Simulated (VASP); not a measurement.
# Valence-band splitting and top hole masses of diamond under uniaxial [001] stress, r2SCAN with spin-orbit coupling

Squeezed by 2 % along [001], diamond has a single level at the top of its valence band, with two more about 0.36 eV below. Stretched by 2 %, it has two levels within 0.009 eV of each other at the top and one about 0.36 eV below. Why does the order turn over, and what does this do to the mass of the holes? The question matters because holes gather near the top of the valence band, so the sign of the strain decides which masses carry the current. Levels are calculated at the zone centre with r2SCAN and spin-orbit coupling, and given as distances below the top level. Strain is counted from the relaxed LDA crystal.

## Method

The start is a typed prototype cell. The crystal was relaxed with LDA. Strain is imposed along [001]; the strain across the axis is adjusted until the stress across it vanishes, and the atoms are relaxed with LDA. VASP 6.6.1, plane waves with PAW, cutoff 600 eV, no spin polarisation. Band edges are single points at r2SCAN with spin-orbit coupling on these cells, k mesh 11×11×11, read on short lines of k points at the zone centre and through the valleys; energies are counted from the valence-band top at the zone centre. Each level is the mean of a Kramers pair; masses are fitted within 0.05 1/Å of the zone centre and are rough where two bands nearly touch. All levels use the PAW data sets made with LDA.

Notes on method and selection:

- Runs that did not converge, have known faults or may not be shown are not listed, and runs on Ansatz's PAW sets soft_1 and soft_2 are kept to separate tables.

Columns:

- strain (%): strain along the axis (tension positive).
- second level (eV): second valence level below the top at Γ.
- third level (eV): third valence level below the top at Γ.
- mass, axis (mₑ): mass of the top hole band along the axis.
- mass, across (mₑ): mass of the top hole band across the axis.

Input lines of one member:

```
PREC = Accurate
ENCUT = 600
EDIFF = 1E-06
NELM = 100
ISMEAR = 0
SIGMA = 0.02
LREAL = .FALSE.
ALGO = Normal
METAGGA = R2SCAN
LASPH = .TRUE.
LNONCOLLINEAR = .TRUE.
NBANDS = 18
GGA_COMPAT = .FALSE.
LSORBIT = .TRUE.
KPAR = 3
```

Command (options for logging and memory left out): `mpirun -np 3 vasp_ncl`

## Data

| member | sign of the strain | strain (%) | second level (eV) | third level (eV) | mass, axis (mₑ) | mass, across (mₑ) |
| --- | --- | --- | --- | --- | --- | --- |
| −2 % | compression | −2.0 | 0.35770 | 0.367 | 0.501 | 0.251 |
| −1.5 % | compression | −1.5 | 0.26710 | 0.276 | 0.493 | 0.257 |
| −1 % | compression | −1.0 | 0.17660 | 0.186 | 0.491 | 0.261 |
| −0.5 % | compression | −0.5 | 0.08650 | 0.096 | 0.482 | 0.267 |
| 0 % | compression | 0.0 | 0.00030 | 0.014 | 0.400 | 0.373 |
| 0 % | tension | 0.0 | 0.00030 | 0.014 | 0.400 | 0.373 |
| +0.5 % | tension | 0.5 | 0.00850 | 0.094 | 0.269 | 0.361 |
| +1 % | tension | 1.0 | 0.00870 | 0.184 | 0.266 | 0.359 |
| +1.5 % | tension | 1.5 | 0.00880 | 0.273 | 0.265 | 0.357 |
| +2 % | tension | 2.0 | 0.00880 | 0.362 | 0.264 | 0.361 |

third level (eV) against strain (%):

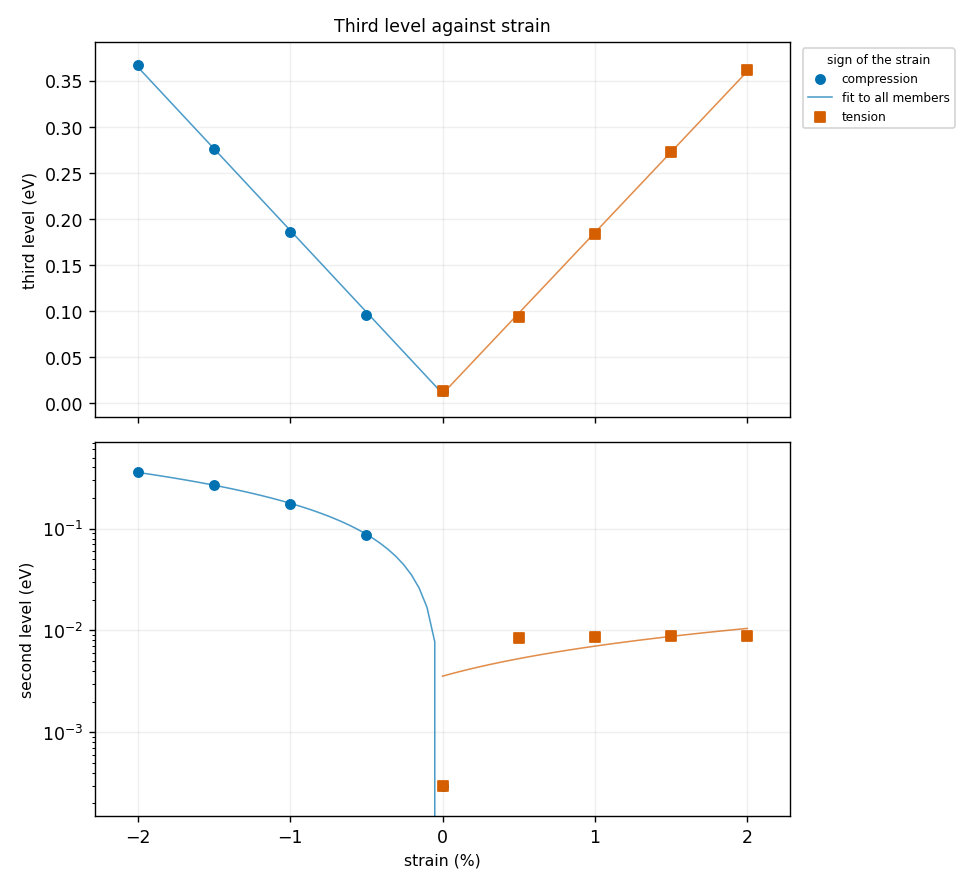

Least-squares fits to the whole series, with x = strain (%); R² and errors in the fitted variable (y, or ln y where the fit is in ln y):

| y | sign of the strain | members | fit | R² | rms residual | leave-one-out rms | the same for the mean of the others |
| --- | --- | --- | --- | --- | --- | --- | --- |
| third level (eV) | compression | 5 | y = 0.01060 − 0.1772 x | 1.00 | 0.0024 | 0.0050 | 0.16 |
| third level (eV) | tension | 5 | y = 0.01040 + 0.1750 x | 1.00 | 0.0026 | 0.0051 | 0.15 |
| second level (eV) | compression | 5 | y = −0.001440 − 0.1791 x | 1.00 | 0.0012 | 0.0025 | 0.16 |
| second level (eV) | tension | 5 | y = 0.003560 + 0.003460 x | 0.53 | 0.0023 | 0.0047 | 0.0042 (fit no better) |

## Mechanism

Under compression both lower levels move away from the top together, about 0.009 eV apart. Under tension the second level stays at 0.0085 to 0.0088 eV and only the third moves away. The top band's mass along the axis is 0.48 to 0.50 mₑ in compression and 0.26 to 0.27 mₑ in tension; across the axis it goes the other way, from 0.25–0.27 to about 0.36 mₑ.

The simplest model takes three p-like bonding orbitals, x, y and z, with z along the stress, and two parameters.

First, strain ε (in %) moves z relative to x and y by δ = −a·ε. Compression turns the bonds away from the axis, which weakens the bonding of z and raises it; tension lowers it.

Second, spin-orbit coupling has a fixed strength Δ. Counted from the x and y orbitals, the combination x ± iy with spin parallel to its orbital moment lies at Δ/3. With spin opposed it lies at −Δ/3 and couples to z, at δ, through √2·Δ/3. This pair gives

E± = (δ − Δ/3)/2 ± S/2, with S = √[(δ + Δ/3)² + 8Δ²/9].

Subtraction from the highest level gives the distances below the top:

- compression (δ > 0): second = (δ − Δ + S)/2, third = S;
- tension (δ < 0): second = (Δ − δ − S)/2, third = (Δ − δ + S)/2.

At δ = 0 the third level lies at Δ. At large strain the x, y pair is split by 2Δ/3, whichever side of z it lies on.

For the masses, each orbital is given one mass along its own axis, m₁, and another across it, m₂. In compression the top band is z-like and shows m₁ along the stress and m₂ across. In tension it is x ± iy, which has m₂ along the stress and, across it, the mean of the two inverse masses: 2/(1/m₁ + 1/m₂).

## Testing the model

The members at 0 % and −2 % fix the two parameters. At zero strain the third level gives Δ = 0.014 eV, so Δ/3 is 0.014 / 3 = 0.00467 eV and 8Δ²/9 is 8 × 0.014² / 9 = 0.000174 eV². At −2 % the third level gives

δ = √(0.367² − 0.000174) − 0.00467 = 0.362 eV, and a = 0.362 / 2.0 = 0.181 eV per %.

**−1 %**, δ = 0.181 eV:
S = √((0.181 + 0.00467)² + 0.000174) = 0.1861 eV
second = (0.181 − 0.014 + 0.1861) / 2 = 0.177 eV; table 0.17660
third = S = 0.186 eV; table 0.186

**+0.5 %**, δ = −0.181 × 0.5 = −0.0905 eV:
S = √((0.0905 − 0.00467)² + 0.000174) = 0.0868 eV
second = (0.014 + 0.0905 − 0.0868) / 2 = 0.0089 eV; table 0.00850
third = (0.014 + 0.0905 + 0.0868) / 2 = 0.096 eV; table 0.094

**+2 %**, δ = −0.362 eV:
S = √((0.362 − 0.00467)² + 0.000174) = 0.3576 eV
second = (0.014 + 0.362 − 0.3576) / 2 = 0.0092 eV; table 0.00880
third = (0.014 + 0.362 + 0.3576) / 2 = 0.367 eV; table 0.362

The small misses in the second level are mostly within what the rounding of Δ to 0.001 eV allows.

For the masses, the −2 % member supplies m₁ = 0.501 and m₂ = 0.251 mₑ. At +2 % the model then gives 0.251 mₑ along the axis, against 0.264 in the table, and across it

2 / (1/0.501 + 1/0.251) = 0.334 mₑ, against 0.361.

Masses read in compression thus predict the reversal in tension.

## Exceptions

Largest departures from the fit to the whole series:

| member | sign of the strain | third level (eV) | fit | computed − fit | in rms residuals |
| --- | --- | --- | --- | --- | --- |
| +0.5 % | tension | 0.094 | 0.098 | −0.004 | 1.5 |
| 0 % | tension | 0.014 | 0.010 | +0.004 | 1.4 |
| 0 % | compression | 0.014 | 0.011 | +0.003 | 1.4 |
| −0.5 % | compression | 0.096 | 0.099 | −0.003 | 1.3 |

These departures from the straight lines lie near zero strain, where spin-orbit coupling holds the third level at Δ and bends its curve; the model contains this bend. On the compression side the model stays within 0.001 eV of the table. In tension it puts the third level too deep, by about 0.002 eV at +0.5 % and 0.005 eV at +2 %. The likely weak point is the assumption that δ depends on the axial strain alone. The crystal contracts sideways in tension less than it expands in compression, so equal axial strains distort the cell less in tension, which has the right sign.

The mass across the axis in tension comes out too small, 0.334 against 0.361 mₑ at +2 %. Here the assumption of an isolated parabolic band fails. With ħ²/2mₑ of about 3.8 eV Å², the hole energy at the edge of the fitted range is roughly 3.8 × 0.05² / 0.36 = 0.026 eV, more than the 0.0088 eV to the second level. The two bands mix and repel, which flattens the upper one and makes it heavier.

The same near-contact makes the masses at zero strain, 0.400 and 0.373 mₑ, rough. The 0.00030 eV splitting there comes from a tiny strain left across the axis; in an exactly cubic cell it would vanish.

## Conclusions and limits

From −2 % to +2 %, one shift per unit strain and one spin-orbit strength reproduce the third level to 0.005 eV or better, where the mean of the other members misses by about 0.15 eV. The change of mass is mainly a change of the orbital at the top; between −2 % and −0.5 % the masses drift by only a few per cent.

The largest error left out is that of the band gap, which r2SCAN makes too small by roughly 1 eV in diamond. That exceeds the whole range of the splittings but largely cancels between valence levels; it can still make the lighter masses too light. The LDA cells are also under compressive stress across the axis at r2SCAN, so the series describes a crystal under some background pressure at that level.

[Logs are printed without paths, hosts, clocks, repeated set-up lines and the standing remarks that a program may print on its own settings, such as how far it seeks lower states.]
